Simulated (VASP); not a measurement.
# Pressure, band gap and energy of antiferromagnetic MnS (R-3m) against volume with r2SCAN

Manganese in MnS is Mn²⁺ with five 3d electrons in the high-spin state, surrounded by six sulfide ions. The R-3m cell is the rock-salt structure, slightly squashed along a body diagonal, with antiparallel moments on successive manganese layers. The problem is to find how pressure, band gap and energy respond when this cell is compressed or stretched evenly. The answer gives the stiffness of the crystal and shows how far an error in the lattice constant carries over into the gap, which matters whenever a gap is computed at an approximate volume. Seven volumes are calculated with r2SCAN. Volume changes are measured from the minimum of the fitted energy curve, and energies, per atom, from the lowest calculated row.

## Calculations

A cell from the Materials Project database, relaxed at this level and then scaled evenly, fractional positions kept. VASP 6.6.1, plane waves with PAW, r2SCAN, cutoff 400 eV, k mesh 8×8×8, collinear spin, no spin-orbit coupling, static lattice. A Birch-Murnaghan fit to the energies has its minimum at 17.21 Å³ per atom.

Notes on method and selection:

- The pressure is that of a finite plane-wave basis, so it need not vanish exactly at the minimum of the energy.
- Only series whose fit has its minimum inside the range and an error under 0.5 meV per atom are shown.
- Where rows or columns differ in functional or spin-orbit coupling, non-spherical gradient terms in the PAW spheres (LASPH) may be on in some and off in others.
- Runs that did not converge, have known faults or may not be shown are not listed, and runs on Ansatz's PAW sets soft_1 and soft_2 are kept to separate tables.

Columns:

- volume change (%): volume relative to the fitted equilibrium volume.
- pressure (GPa): pressure from the stress tensor (positive: compressed).
- energy (meV/atom): energy per atom above the lowest point of the series.
- gap (eV): smallest gap on the k mesh.

Input lines of one member:

```
PREC = Accurate
ENCUT = 400
EDIFF = 1E-06
NELM = 100
ISMEAR = 0
SIGMA = 0.05
LREAL = .FALSE.
ALGO = Normal
METAGGA = R2SCAN
LASPH = .TRUE.
NBANDS = 27
ISPIN = 2
LMAXMIX = 4
LORBIT = 11
KPAR = 8
```

Command (options for logging and memory left out): `mpirun -np 8 vasp_std`

## Computed values

| member | volume change (%) | pressure (GPa) | energy (meV/atom) | gap (eV) |
| --- | --- | --- | --- | --- |
| 16.10 Å³ | −6.46 | 6.01 | 21.26 | 1.439 |
| 16.44 Å³ | −4.47 | 3.79 | 9.92 | 1.521 |
| 16.78 Å³ | −2.48 | 1.79 | 2.76 | 1.599 |
| 17.12 Å³ | −0.49 | −0.02 | 0.00 | 1.673 |
| 17.47 Å³ | 1.50 | −1.67 | 0.97 | 1.745 |
| 17.81 Å³ | 3.49 | −3.13 | 5.19 | 1.813 |
| 18.15 Å³ | 5.48 | −4.48 | 12.48 | 1.879 |

pressure (GPa) against volume change (%):

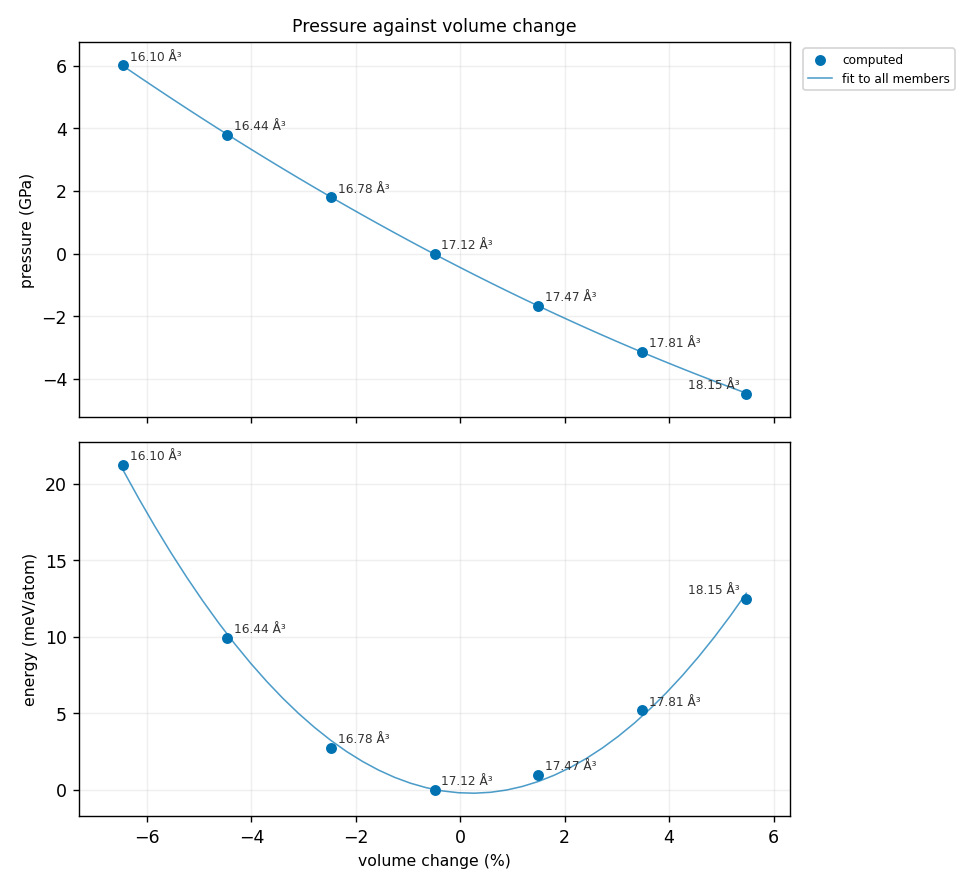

Least-squares fits to the whole series, with x = volume change (%); R² and errors in the fitted variable (y, or ln y where the fit is in ln y):

| y | members | fit | R² | rms residual | leave-one-out rms | the same for the mean of the others |
| --- | --- | --- | --- | --- | --- | --- |
| pressure (GPa) | 7 | y = −0.4474 − 0.8536 x + 0.02216 x² | 1.00 | 0.018 | 0.049 | 4.1 |
| energy (meV/atom) | 7 | y = −0.2059 − 0.2106 x + 0.4735 x² | 1.00 | 0.35 | 0.91 | 8.2 |

## Mechanism

Pressure falls at each step of expansion, from 6.01 to −4.48 GPa, but not at a constant rate. Between the two smallest cells it changes by (6.01 − 3.79) / 1.99 = 1.12 GPa per percent of volume, and between the two largest by (4.48 − 3.13) / 1.99 = 0.68 GPa per percent. The compressed crystal is stiffer because the repulsion between neighbouring ion shells rises steeply as the Mn–S bonds shorten. At the fitted minimum the slope is −0.8536 GPa per percent, so the bulk modulus B = −V dP/dV is about 85 GPa.

The energy shows the same asymmetry. A purely harmonic crystal would follow E = ½BV₀(ΔV/V₀)², equally steep on both sides. The calculated energy is already 9.92 meV/atom at −4.47 %, while at the larger distance of +5.48 % it is only 12.48 meV/atom. A harmonic curve through the first of these values would give 9.92 × (5.48 / 4.47)² = 14.9 meV/atom there.

At the volume where the fitted energy is lowest, the pressure fit gives −0.45 GPa instead of zero. The stress is evaluated with a fixed set of plane waves, whereas the energies at a fixed cutoff use a set that changes with the volume. An incomplete basis then makes the stress-tensor pressure too low, which is the sign found here.

The gap widens with volume, from 1.439 to 1.879 eV, or 0.440 / 11.94 = 0.037 eV per percent on average. A straight line through the two end rows misses the seven gaps by typically 0.01 eV, against a scatter of 0.15 eV about their mean. Many common semiconductors behave the other way and lose gap on expansion.

The d⁵ configuration offers a likely reason. If the gap runs from states with filled majority-spin d character to empty minority-spin d states, it is the exchange splitting reduced by the crystal-field splitting and the band widths. Longer bonds weaken both reductions, and the moments, which grow steadily with volume, point to a slightly larger exchange splitting. Take a crystal field of roughly 1 eV that varies as d⁻⁵, with d the bond length. Since d grows as the cube root of the volume, the field falls by 5/3 percent per percent of volume. The weaker crystal field alone would then widen the gap by about 0.02 eV per percent, roughly half the calculated slope.

## Exceptions

Largest departures from the fit to the whole series:

| member | pressure (GPa) | fit | computed − fit | in rms residuals |
| --- | --- | --- | --- | --- |
| 17.81 Å³ | −3.13 | −3.16 | +0.03 | 1.5 |
| 16.44 Å³ | 3.79 | 3.81 | −0.02 | 1.2 |
| 18.15 Å³ | −4.48 | −4.46 | −0.02 | 1.1 |
| 16.10 Å³ | 6.01 | 5.99 | +0.02 | 1.0 |

The departures from the quadratic pressure fit are tiny. The largest is +0.03 GPa at 17.81 Å³, on a curve that spans more than 10 GPa. Their signs nevertheless follow a pattern: in order of volume, the four listed rows lie above, below, above and below the fit. A missing cubic term leaves this sequence, and for an ordinary equation of state with this bulk modulus it should amount to roughly 0.02 GPa, as observed.

The quadratic energy fit suffers more visibly from the same omission. Its largest miss is at 16.78 Å³, where it gives −0.2059 + 0.2106 × 2.48 + 0.4735 × 2.48² = 3.23 meV/atom against the calculated 2.76. At 17.47 Å³ it errs in the other direction, with 0.54 against 0.97 meV/atom. Close to the minimum such misses are a large part of the energy itself, so the Birch-Murnaghan curve, which contains the asymmetry, is the better description there.

## Worked examples

**Do the energies confirm that the stress-tensor pressure is too low?**
The mean pressure between the end volumes follows from the energy difference: (21.26 − 12.48) / (18.15 − 16.10) = 4.28 meV/Å³. With 1 meV/Å³ = 0.1602 GPa this is 0.69 GPa. The trapezoidal mean of the tabulated pressures is (6.01/2 + 3.79 + 1.79 − 0.02 − 1.67 − 3.13 − 4.48/2) / 6 = 0.25 GPa. The difference, 0.69 − 0.25 = 0.44 GPa, agrees with the 0.45 GPa read from the fit at the energy minimum. Adding 0.45 GPa to each tabulated pressure is therefore a reasonable correction on average over this range.

**How much does the gap change under a real pressure of 5 GPa?**
The corresponding tabulated pressure is 5 − 0.45 = 4.55 GPa. It is reached at −4.47 − (4.55 − 3.79) / 1.116 = −5.15 %. Between the two smallest cells the gap changes by (1.521 − 1.439) / 1.99 = 0.0412 eV per percent, so the gap there is 1.521 − 0.68 × 0.0412 = 1.493 eV. Around the energy minimum the slope is (1.745 − 1.673) / 1.99 = 0.0362 eV per percent, and the gap at the minimum is 1.673 + 0.49 × 0.0362 = 1.691 eV. The change is −0.20 eV, or −0.04 eV per GPa. Leaving out the correction moves both volumes by similar amounts and hardly alters this difference.

**What does a volume error of 2 % do to the gap?**
Around the minimum the slope is (1.745 − 1.599) / 3.98 = 0.037 eV per percent. The gap shifts by 2 × 0.037 = 0.07 eV, upward if the volume is too large. Because the volume goes as the cube of the lattice constant, an error of only 2 / 3 = 0.7 % in the lattice constant is enough to cause this.

## Conclusions and limits

Between −6.46 and +5.48 % in volume, expansion lowers the pressure and widens the gap of this antiferromagnetic state, and compression costs more energy than equal expansion.

The gap itself should be read as too small, since semilocal functionals, r2SCAN included, generally underestimate gaps in such compounds. Its change with volume is likely to be more dependable than its absolute size. Zero-point motion and heating, absent from a static lattice, would enlarge the cell and through the volume alone raise the gap; the direct coupling of electrons to vibrations usually lowers it.

Magnetic order matters more than any volume change considered here: near equilibrium the ferromagnetic state has no gap at this level. The slopes therefore belong to the antiferromagnetic order and should not be carried over to the paramagnetic crystal at room temperature without a separate treatment of spin disorder.

[Logs are printed without paths, hosts, clocks, repeated set-up lines and the standing remarks that a program may print on its own settings, such as how far it seeks lower states.]
